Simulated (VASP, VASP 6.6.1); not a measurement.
# The band gap of Cs₂AgBiBr₆ from LDA to r²SCAN: spin-orbit coupling, silver d states and a remaining deficit

## The measurement

The reference is an indirect gap of 2.12 eV, obtained from a Tauc plot of UV-visible absorption on a hydrothermally grown single crystal about 500 µm thick ("Highly ordered lead-free double perovskite halides by design", 2020, arXiv:2006.15818). The crystal was grown with silver in excess; we take this as favourable to silver-bismuth order, and so to comparison with an ideal crystal. The temperature is not given with the value. A second value, 2.1 eV, is the absorption onset in diffuse reflectance of a ball-milled, iron-free powder ("Conduction band tuning by controlled alloying of Fe into Cs2AgBiBr6 double perovskite powders", 2023, arXiv:2307.12747). Milling disorder and tail absorption may lower such an onset a little. Both are optical values from which excitonic effects have not been removed, and at an indirect edge both depend on how a weak, phonon-assisted absorption is extrapolated.

| compared with | measured | source's wording or label | method |
| --- | --- | --- | --- |
| fundamental gap (eV) | 2.12 | indirect gap from Tauc plot of optical absorption, Ag:Bi = 1.15:1 in precursor | UV-visible absorption, Tauc plot * |
| fundamental gap (eV) | 2.1 | absorption onset from diffuse reflectance (indirect gap), x = 0 | diffuse reflectance UV-vis, Kubelka-Munk |

Where a quantity has several values, deviations refer to the one marked *.

Conditions are those given with the value in the passage it was taken from; "not stated" means there, and the paper may say more elsewhere. The values are a selection: others may have been left out beforehand as unlike or outlying.

## Model and target

We look for the cheapest level of theory that gives the fundamental gap of cubic Cs₂AgBiBr₆ within 0.1 eV of 2.12 eV. That is tight enough to be of use when gap changes on alloying or ordering are discussed, and it separates functionals whose gaps commonly differ by several tenths of an eV.

The model is the ordered ten-atom cell at the experimental lattice constant of 11.267 Å, with the atomic positions relaxed in LDA. The nuclei are static. Electron-phonon coupling, which is strong in this material, and exciton binding are both left out; the latter places an optical gap below the quasiparticle gap. With bismuth present, spin-orbit coupling must enter before any level is judged, and even then gaps of 6p compounds from such calculations are uncertain by one to three tenths of an eV. A hit within the target would therefore be agreement with this reference, not proof of the method.

We begin with LDA, settle how the band edges have to be sampled and whether mesh and cutoff suffice, and then add spin-orbit coupling and better functionals as the gaps require.

System: Cs2AgBiBr6; Fm-3m (No. 225), 10 atoms in the cell; conventional a = 11.267 A, lattice from the cited papers, sites from COD.

On the selection of runs and values: Electron-phonon renormalisation and excitons are left out; optical values lie below the quasiparticle gap by the exciton binding energy. 7 further cited values are not listed: repeats, values quoted from earlier work, more than five for one quantity or six quantities, optical onsets of an indirect gap, or quantities that fewer than three runs give.

## 1. LDA on a plain mesh

The lightest calculation is LDA without spin-orbit coupling, with the levels read on a 4×4×4 mesh only. We expect an indirect gap well below experiment, as is usual for LDA. Repeating it with levels along the symmetry lines shows whether the mesh catches the band edges.

**Run 1.** VASP 6.6.1: LDA; 350 eV, 4x4x4 k mesh; cell with the cited lattice and the database's sites with atoms relaxed by LDA; levels on the mesh alone, LASPH on.

Key lines of the input:
```
ALGO = Normal
EDIFF = 1E-06
ENCUT = 350
GGA = CA
ISMEAR = 0
LASPH = .TRUE.
NBANDS = 53
NELM = 100
PREC = Accurate
SIGMA = 0.03
KPOINTS: Gamma, 4 4 4
PAW data sets: Bi_d Cs_sv Ag Br (LDA 64)
```

Command:
```
mpirun -np 16 vasp_std
```

Converged; 7.6 s on 16 cores of AMD EPYC 9R45 96, shared host.

**Run 2.** VASP 6.6.1: LDA; 350 eV, 4x4x4 k mesh; cell with the cited lattice and the database's sites with atoms relaxed by LDA; levels on the mesh and along the symmetry lines, LASPH on.

Key lines of the input, as changed from run 1:
```diff
- NBANDS = 53
+ NBANDS = 67
+ KPOINTS_OPT: line mode along the symmetry lines
```

Selected lines of the output:
```
 k-point     1 :       0.0000    0.0000    0.0000
  band No.  band energies     occupation
     41       0.0495      2.00000
     42       0.5907      2.00000
     43       0.5907      2.00000
     44       3.2163      0.00000
```

Converged; 42 s on the same hardware.

| quantity | run 1 | run 2 | measured |
| --- | --- | --- | --- |
| fundamental gap (eV) | 1.065 | 1.065 | 2.12 |
| smallest direct gap (eV) | 2.243 | 2.154 |  |
| kind of gap | indirect | indirect |  |
| k points of the band edges | – | top at (0.500, 0.000, 0.500), bottom at (0.500, 0.000, 0.000) |  |

LDA gives an indirect gap of 1.065 eV, about half the reference. The valence band top lies at X and the conduction band bottom at L. Both points belong to the 4×4×4 mesh, so the symmetry lines leave the fundamental gap unchanged. They do lower the smallest direct gap, from 2.243 to 2.154 eV, because that one falls between mesh points. At Γ the separation between bands 43 and 44 is larger still, about 2.6 eV.

## 2. Denser mesh and higher cutoff

A deficit of more than 1 eV is hardly a matter of numerical settings, but the later levels will be judged to 0.1 eV, and LDA is the cheap place to test mesh and cutoff. We raise each separately, the mesh to 6×6×6 and the cutoff to 500 eV. With the band edges already sampled exactly, we expect changes well below the target.

**Run 3.** VASP 6.6.1: LDA; 350 eV, 6x6x6 k mesh; cell with the cited lattice and the database's sites with atoms relaxed by LDA; levels on the mesh and along the symmetry lines, LASPH on.

Key lines of the input, as changed from run 2:
```diff
- KPOINTS: Gamma, 4 4 4
+ KPOINTS: Gamma, 6 6 6
```

Converged; 65 s on the same hardware.

**Run 4.** VASP 6.6.1: LDA; 500 eV, 4x4x4 k mesh; cell with the cited lattice and the database's sites with atoms relaxed by LDA; levels on the mesh and along the symmetry lines, LASPH on.

Key lines of the input, as changed from run 2:
```diff
- ENCUT = 350
+ ENCUT = 500
```

Converged; 80 s on the same hardware.

| quantity | run 3 | run 4 | measured |
| --- | --- | --- | --- |
| fundamental gap (eV) | 1.067 | 1.068 | 2.12 |
| smallest direct gap (eV) | 2.155 | 2.156 |  |
| kind of gap | indirect | indirect |  |
| k points of the band edges | top at (0.500, 0.000, 0.500), bottom at (0.500, 0.000, 0.000) | top at (0.500, 0.000, 0.500), bottom at (0.500, 0.000, 0.000) |  |

The denser mesh raises the LDA gap by 0.002 eV and the higher cutoff by 0.003 eV. For LDA, 350 eV and a 4×4×4 mesh are ample for a target of 0.1 eV, and we keep them for the next levels.

## 3. Spin-orbit coupling and a gradient correction

Two changes to LDA are still inexpensive, and we make them separately: spin-orbit coupling, and the replacement of LDA by PBE. The conduction band has strong Bi 6p character, so the coupling should lower it and widen the deficit by some tenths of an eV. PBE usually opens gaps only slightly relative to LDA at a fixed structure. Neither is expected to reach the reference, but the first tells how much a better functional has to make up.

**Run 5.** VASP 6.6.1: LDA with spin-orbit coupling; 350 eV, 4x4x4 k mesh; cell with the cited lattice and the database's sites with atoms relaxed by LDA; levels on the mesh and along the symmetry lines, LASPH on.

Key lines of the input, as changed from run 2:
```diff
+ GGA_COMPAT = .FALSE.
- NBANDS = 67
+ LMAXMIX = 4
+ LNONCOLLINEAR = .TRUE.
+ LSORBIT = .TRUE.
+ MAGMOM = 0 0 0 0 0 0 0 0 0 0 0 0 0 0 0 0 0 0 0 0 0 0 0 0 0 0 0 0 0 0
+ NBANDS = 106
```

Command:
```
mpirun -np 16 vasp_ncl
```

Converged; 2.4 min on the same hardware.

**Run 6.** VASP 6.6.1: PBE; 350 eV, 4x4x4 k mesh; cell with the cited lattice and the database's sites with atoms relaxed by LDA; levels on the mesh and along the symmetry lines, LASPH on.

Key lines of the input, as changed from run 2:
```diff
- GGA = CA
+ GGA = PE
- PAW data sets: Bi_d Cs_sv Ag Br (LDA 64)
+ PAW data sets: Bi_d Cs_sv Ag Br (PBE 64)
```

Converged; 44 s on the same hardware.

| quantity | run 5 | run 6 | measured |
| --- | --- | --- | --- |
| fundamental gap (eV) | 0.918 | 1.213 | 2.12 |
| smallest direct gap (eV) | 1.643 | 2.283 |  |
| kind of gap | indirect | indirect |  |
| k points of the band edges | top at (0.500, 0.000, 0.500), bottom at (0.500, 0.500, 0.500) | top at (0.500, 0.500, 0.000), bottom at (0.500, 0.000, 0.000) |  |

With spin-orbit coupling the LDA gap falls from 1.065 to 0.918 eV, a smaller drop than we had expected. The smallest direct gap falls much further, by 0.511 eV. The two band edges stay at X and L; the different coordinates printed for them are equivalent points of the cubic zone. The input with the coupling also changes the band count, the treatment of the gradient terms and the density mixing, so the shift is not strictly that of the coupling alone, though we expect these other changes to matter little.

PBE opens the gap from 1.065 to 1.213 eV, by roughly 0.15 eV, which is about what the coupling takes away. Both levels remain far below 2.12 eV.

## 4. A Hubbard term on silver

The valence band top of this compound is commonly described as a mixture of Ag 4d and Br 4p states. Semilocal functionals place filled d shells too high, which would push this edge up and narrow the gap. A Hubbard U of 5 eV on silver corrects that at little more than the effort of LDA. We expect it to open the gap by a few tenths of an eV, but not by the full 1 eV that is missing, since the conduction band is mostly bismuth and halogen.

**Run 7.** VASP 6.6.1: LDA+U (Ag 5 eV); 350 eV, 4x4x4 k mesh; cell with the cited lattice and the database's sites with atoms relaxed by LDA; levels on the mesh and along the symmetry lines, LASPH on.

Key lines of the input, as changed from run 2:
```diff
+ LDAU = .TRUE.
+ LDAUJ = 0 0 0 0
+ LDAUL = -1 -1 2 -1
+ LDAUTYPE = 2
+ LDAUU = 0 0 5 0
+ LMAXMIX = 4
```

Selected lines of the output:
```
 k-point     1 :       0.0000    0.0000    0.0000
  band No.  band energies     occupation
     41       0.0393      2.00000
     42       0.1363      2.00000
     43       0.1363      2.00000
```

Converged; 50 s on the same hardware.

| quantity | run 7 | measured | deviation |
| --- | --- | --- | --- |
| fundamental gap (eV) | 1.454 | 2.12 | −0.666 |
| smallest direct gap (eV) | 2.410 |  |  |
| kind of gap | indirect |  |  |
| k points of the band edges | top at (0.500, 0.000, 0.500), bottom at (0.500, 0.000, 0.000) |  |  |

The Hubbard term opens the gap by 0.389 eV, in the range we expected, and leaves the band edges at X and L. Its action is visible at Γ, where the highest valence pair, which we take to be silver-derived, lay 0.54 eV above the next level in LDA and now lies only 0.10 eV above it. The gap is still 0.666 eV too small, and this run lacks spin-orbit coupling, which lowered the LDA value. This suggests that the position of the silver d states is part of the LDA error, but correcting it with this U does not close the gap to experiment.

## 5. r²SCAN with and without spin-orbit coupling

Rather than fit a larger U, we move to the meta-GGA r²SCAN, which has no parameter to be set for this compound and usually opens semiconductor gaps by a few tenths of an eV over PBE. We run it without and with spin-orbit coupling, so that the effect of the coupling need not be carried over from LDA. We expect the gap to stay short of the reference in both cases.

**Run 8.** VASP 6.6.1: r2SCAN; 350 eV, 4x4x4 k mesh; cell with the cited lattice and the database's sites with atoms relaxed by LDA; levels on the mesh and along the symmetry lines, LASPH on.

Key lines of the input, as changed from run 6:
```diff
- GGA = PE
+ METAGGA = R2SCAN
```

Converged; 2.5 min on the same hardware.

**Run 9.** VASP 6.6.1: r2SCAN with spin-orbit coupling; 350 eV, 4x4x4 k mesh; cell with the cited lattice and the database's sites with atoms relaxed by LDA; levels on the mesh and along the symmetry lines, LASPH on.

Key lines of the input, as changed from run 5:
```diff
- GGA = CA
+ METAGGA = R2SCAN
- PAW data sets: Bi_d Cs_sv Ag Br (LDA 64)
+ PAW data sets: Bi_d Cs_sv Ag Br (PBE 64)
```

Converged; 9.4 min on the same hardware.

| quantity | run 8 | run 9 | measured |
| --- | --- | --- | --- |
| fundamental gap (eV) | 1.575 | 1.367 | 2.12 |
| smallest direct gap (eV) | 2.648 | 1.991 |  |
| kind of gap | indirect | indirect |  |
| k points of the band edges | top at (0.500, 0.500, 0.000), bottom at (0.500, 0.500, 0.500) | top at (0.500, 0.000, 0.500), bottom at (0.500, 0.000, 0.000) |  |

Without spin-orbit coupling r²SCAN gives 1.575 eV, which is 0.362 eV above PBE and also above LDA with the Hubbard term. The coupling lowers this to 1.367 eV, leaving the gap 0.753 eV short of the reference. The drop of about 0.21 eV is larger than the roughly 0.15 eV found in LDA, so it was worth computing the coupling for this functional itself. As in LDA, it acts more strongly on the smallest direct gap, which falls from 2.648 to 1.991 eV.

## 6. The TB-mBJ potential

The remaining deficit calls for a method aimed at gaps. The TB-mBJ potential is built for band gaps and avoids the exact exchange of a hybrid functional; it yields no usable total energies, but at a fixed structure none are needed. We again run it without and with spin-orbit coupling, and only the second will be judged. We expect a gap several tenths of an eV above r²SCAN, with the coupling taking back roughly 0.2 eV.

**Run 10.** VASP 6.6.1: TB-mBJ; 350 eV, 4x4x4 k mesh; cell with the cited lattice and the database's sites with atoms relaxed by LDA; levels on the mesh and along the symmetry lines, LASPH on.

Key lines of the input, as changed from run 6:
```diff
- GGA = PE
+ METAGGA = MBJ
- NELM = 100
+ NELM = 150
```

Selected lines of the output:
```
DAV: 146     0.345596683214E+04    0.11983E+04   -0.14494E+04  1600   0.153E+03    0.191E+03
DAV: 147    -0.121462987815E+04   -0.46706E+04   -0.33691E+04  2016   0.754E+02    0.191E+03
DAV: 148     0.127808905070E+04    0.24927E+04   -0.21768E+04  2032   0.106E+03    0.171E+03
DAV: 149     0.335170641151E+04    0.20736E+04   -0.13571E+04  1560   0.660E+02    0.192E+03
DAV: 150     0.316795813677E+04   -0.18375E+03   -0.48260E+03  1973   0.123E+03
```

Not converged; 7.5 min on the same hardware.

**Run 11.** VASP 6.6.1: TB-mBJ with spin-orbit coupling; 350 eV, 4x4x4 k mesh; cell with the cited lattice and the database's sites with atoms relaxed by LDA; levels on the mesh and along the symmetry lines, LASPH on.

Key lines of the input, as changed from run 9:
```diff
- METAGGA = R2SCAN
+ METAGGA = MBJ
- NELM = 100
+ NELM = 150
```

Selected lines of the output:
```
DAV: 146    -0.527714065783E+05   -0.54972E+05   -0.51324E+05  3352   0.327E+03    0.106E+04
DAV: 147     0.507817586695E+04    0.57850E+05   -0.43941E+04  2936   0.255E+03    0.348E+03
DAV: 148     0.109418606298E+04   -0.39840E+04   -0.30553E+04  3392   0.199E+03    0.585E+03
DAV: 149    -0.676551996056E+04   -0.78597E+04   -0.83273E+04  3198   0.397E+03    0.853E+03
DAV: 150     0.276680636601E+04    0.95323E+04   -0.14746E+04  3152   0.260E+03
```

Not converged; 21 min on the same hardware.

Neither TB-mBJ run reached self-consistency. After 150 electronic steps the total energy still jumps from one step to the next, by hundreds to thousands of eV without spin-orbit coupling and by thousands to tens of thousands with it, so these are not runs that stopped just short of convergence. No gap can be taken from them, and they neither support nor refute our expectation of a value above r²SCAN.

Since both runs fail in the same way, spin-orbit coupling is not needed to produce the instability. Its cause stays open: it may lie in the density mixing or in the potential itself for this cell. Merely allowing more steps looks unpromising; a restart from a converged PBE density with more cautious mixing would be the natural remedy, but is not shown in this report. The failure says nothing about how accurate TB-mBJ would be for this compound.

## Collected results

| run | settings | fundamental gap (eV) | deviation | cost | status |
| --- | --- | --- | --- | --- | --- |
| 1 | LDA, 350 eV, 4x4x4 k mesh, levels on the mesh alone | 1.065 | −1.055 | 2 core-min |  |
| 2 | LDA, 350 eV, 4x4x4 k mesh, levels on the mesh and along the symmetry lines | 1.065 | −1.055 | 11 core-min |  |
| 3 | LDA, 350 eV, 6x6x6 k mesh, levels on the mesh and along the symmetry lines | 1.067 | −1.053 | 17 core-min |  |
| 4 | LDA, 500 eV, 4x4x4 k mesh, levels on the mesh and along the symmetry lines | 1.068 | −1.052 | 21 core-min |  |
| 5 | LDA with spin-orbit coupling, 350 eV, 4x4x4 k mesh, levels on the mesh and along the symmetry lines | 0.918 | −1.202 | 39 core-min |  |
| 6 | PBE, 350 eV, 4x4x4 k mesh, levels on the mesh and along the symmetry lines | 1.213 | −0.907 | 12 core-min |  |
| 7 | LDA+U (Ag 5 eV), 350 eV, 4x4x4 k mesh, levels on the mesh and along the symmetry lines | 1.454 | −0.666 | 13 core-min |  |
| 8 | r2SCAN, 350 eV, 4x4x4 k mesh, levels on the mesh and along the symmetry lines | 1.575 | −0.545 | 40 core-min |  |
| 9 | r2SCAN with spin-orbit coupling, 350 eV, 4x4x4 k mesh, levels on the mesh and along the symmetry lines | 1.367 | −0.753 | 2.5 core-h |  |
| 10 | TB-mBJ, 350 eV, 4x4x4 k mesh, levels on the mesh and along the symmetry lines | – |  | 2 core-h | not converged |
| 11 | TB-mBJ with spin-orbit coupling, 350 eV, 4x4x4 k mesh, levels on the mesh and along the symmetry lines | – |  | 5.6 core-h | not converged |
|  | measured | 2.12 |  |  |  |

The runs in order, against the measurement:

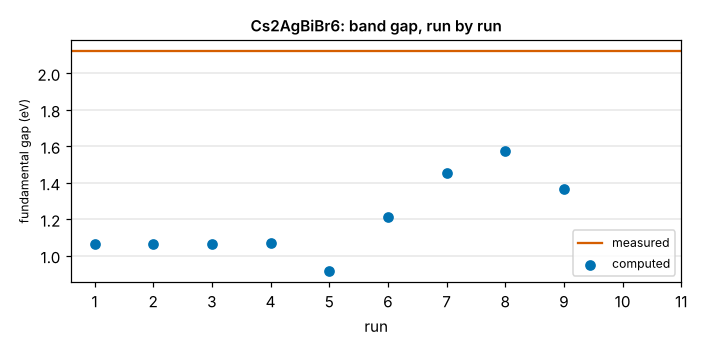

Further runs on the same system, made beside this series (convergence steps with loose settings among them):

| further | settings | fundamental gap (eV) | deviation | cost |
| --- | --- | --- | --- | --- |
| F1 | r2SCAN+U (Ag 2.5 eV), 350 eV, 4x4x4 k mesh, cell with the cited lattice and the database's sites with atoms relaxed by LDA, levels on the mesh and along the symmetry lines | 1.81 | −0.31 | 39 core-min |
| F2 | LDA, 350 eV, 4x4x4 k mesh, LDA-relaxed cell, levels on the mesh and along the symmetry lines, relaxed twice | 0.947 | −1.173 | 24 core-min |
|  | measured | 2.12 |  |  |

## Outcome

The target was missed. r²SCAN with spin-orbit coupling, the most complete level that converged, gives 1.367 eV at a cost of 2.5 core-hours, 0.753 eV below the reference. No converged run comes within 0.1 eV of 2.12 eV. The nearest, r²SCAN with a Hubbard term on silver, reaches 1.81 eV but omits spin-orbit coupling, which would lower it and widen the miss.

Besides the choice of functional, two effects stand out. Spin-orbit coupling lowers the gap by about 0.15 eV in LDA and about 0.21 eV in r²SCAN, so PBE and r²SCAN without it look better than they are. The Hubbard term on silver raises the gap by 0.389 eV in LDA (U of 5 eV) and by about 0.24 eV in r²SCAN (U of 2.5 eV), which points to silver d states lying too high as part of the error. We ascribe most of the rest to the usual gap underestimation of semilocal functionals. Mesh and cutoff changed the LDA gap by only a few meV; a check of them for r²SCAN is not shown in this report. The choice of cell weighs more: relaxing it in LDA lowers the gap from 1.065 to 0.947 eV, by about 0.12 eV. The atomic positions were relaxed in LDA for every level; the effect of relaxing them with another functional is not shown in this report.

The deficit exceeds the one to three tenths of an eV by which such spin-orbit gaps are uncertain for 6p elements. The reference hardly explains it either: the two optical values nearly agree, and exciton binding and any remaining silver-bismuth disorder would both put the gap of the ideal crystal higher still. Electron-phonon coupling is strong here, and its share remains open.

The two TB-mBJ runs, at 2 and 5.6 core-hours, failed to converge and yielded no gap, so this report does not show how accurate that potential is here. A hybrid functional with spin-orbit coupling would be the natural next step.

[Logs are printed without paths, hosts, clocks, repeated set-up lines and the standing remarks that a program may print on its own settings, such as how far it seeks lower states.]

[The runs shown are a pick from a larger set of finished runs; failed, doubtful and other runs were left out of it ahead of writing. So were measured values far from every level or from commonly accepted values, and agreement can look better than it is. Lines of input and output are excerpts and may be shortened.]
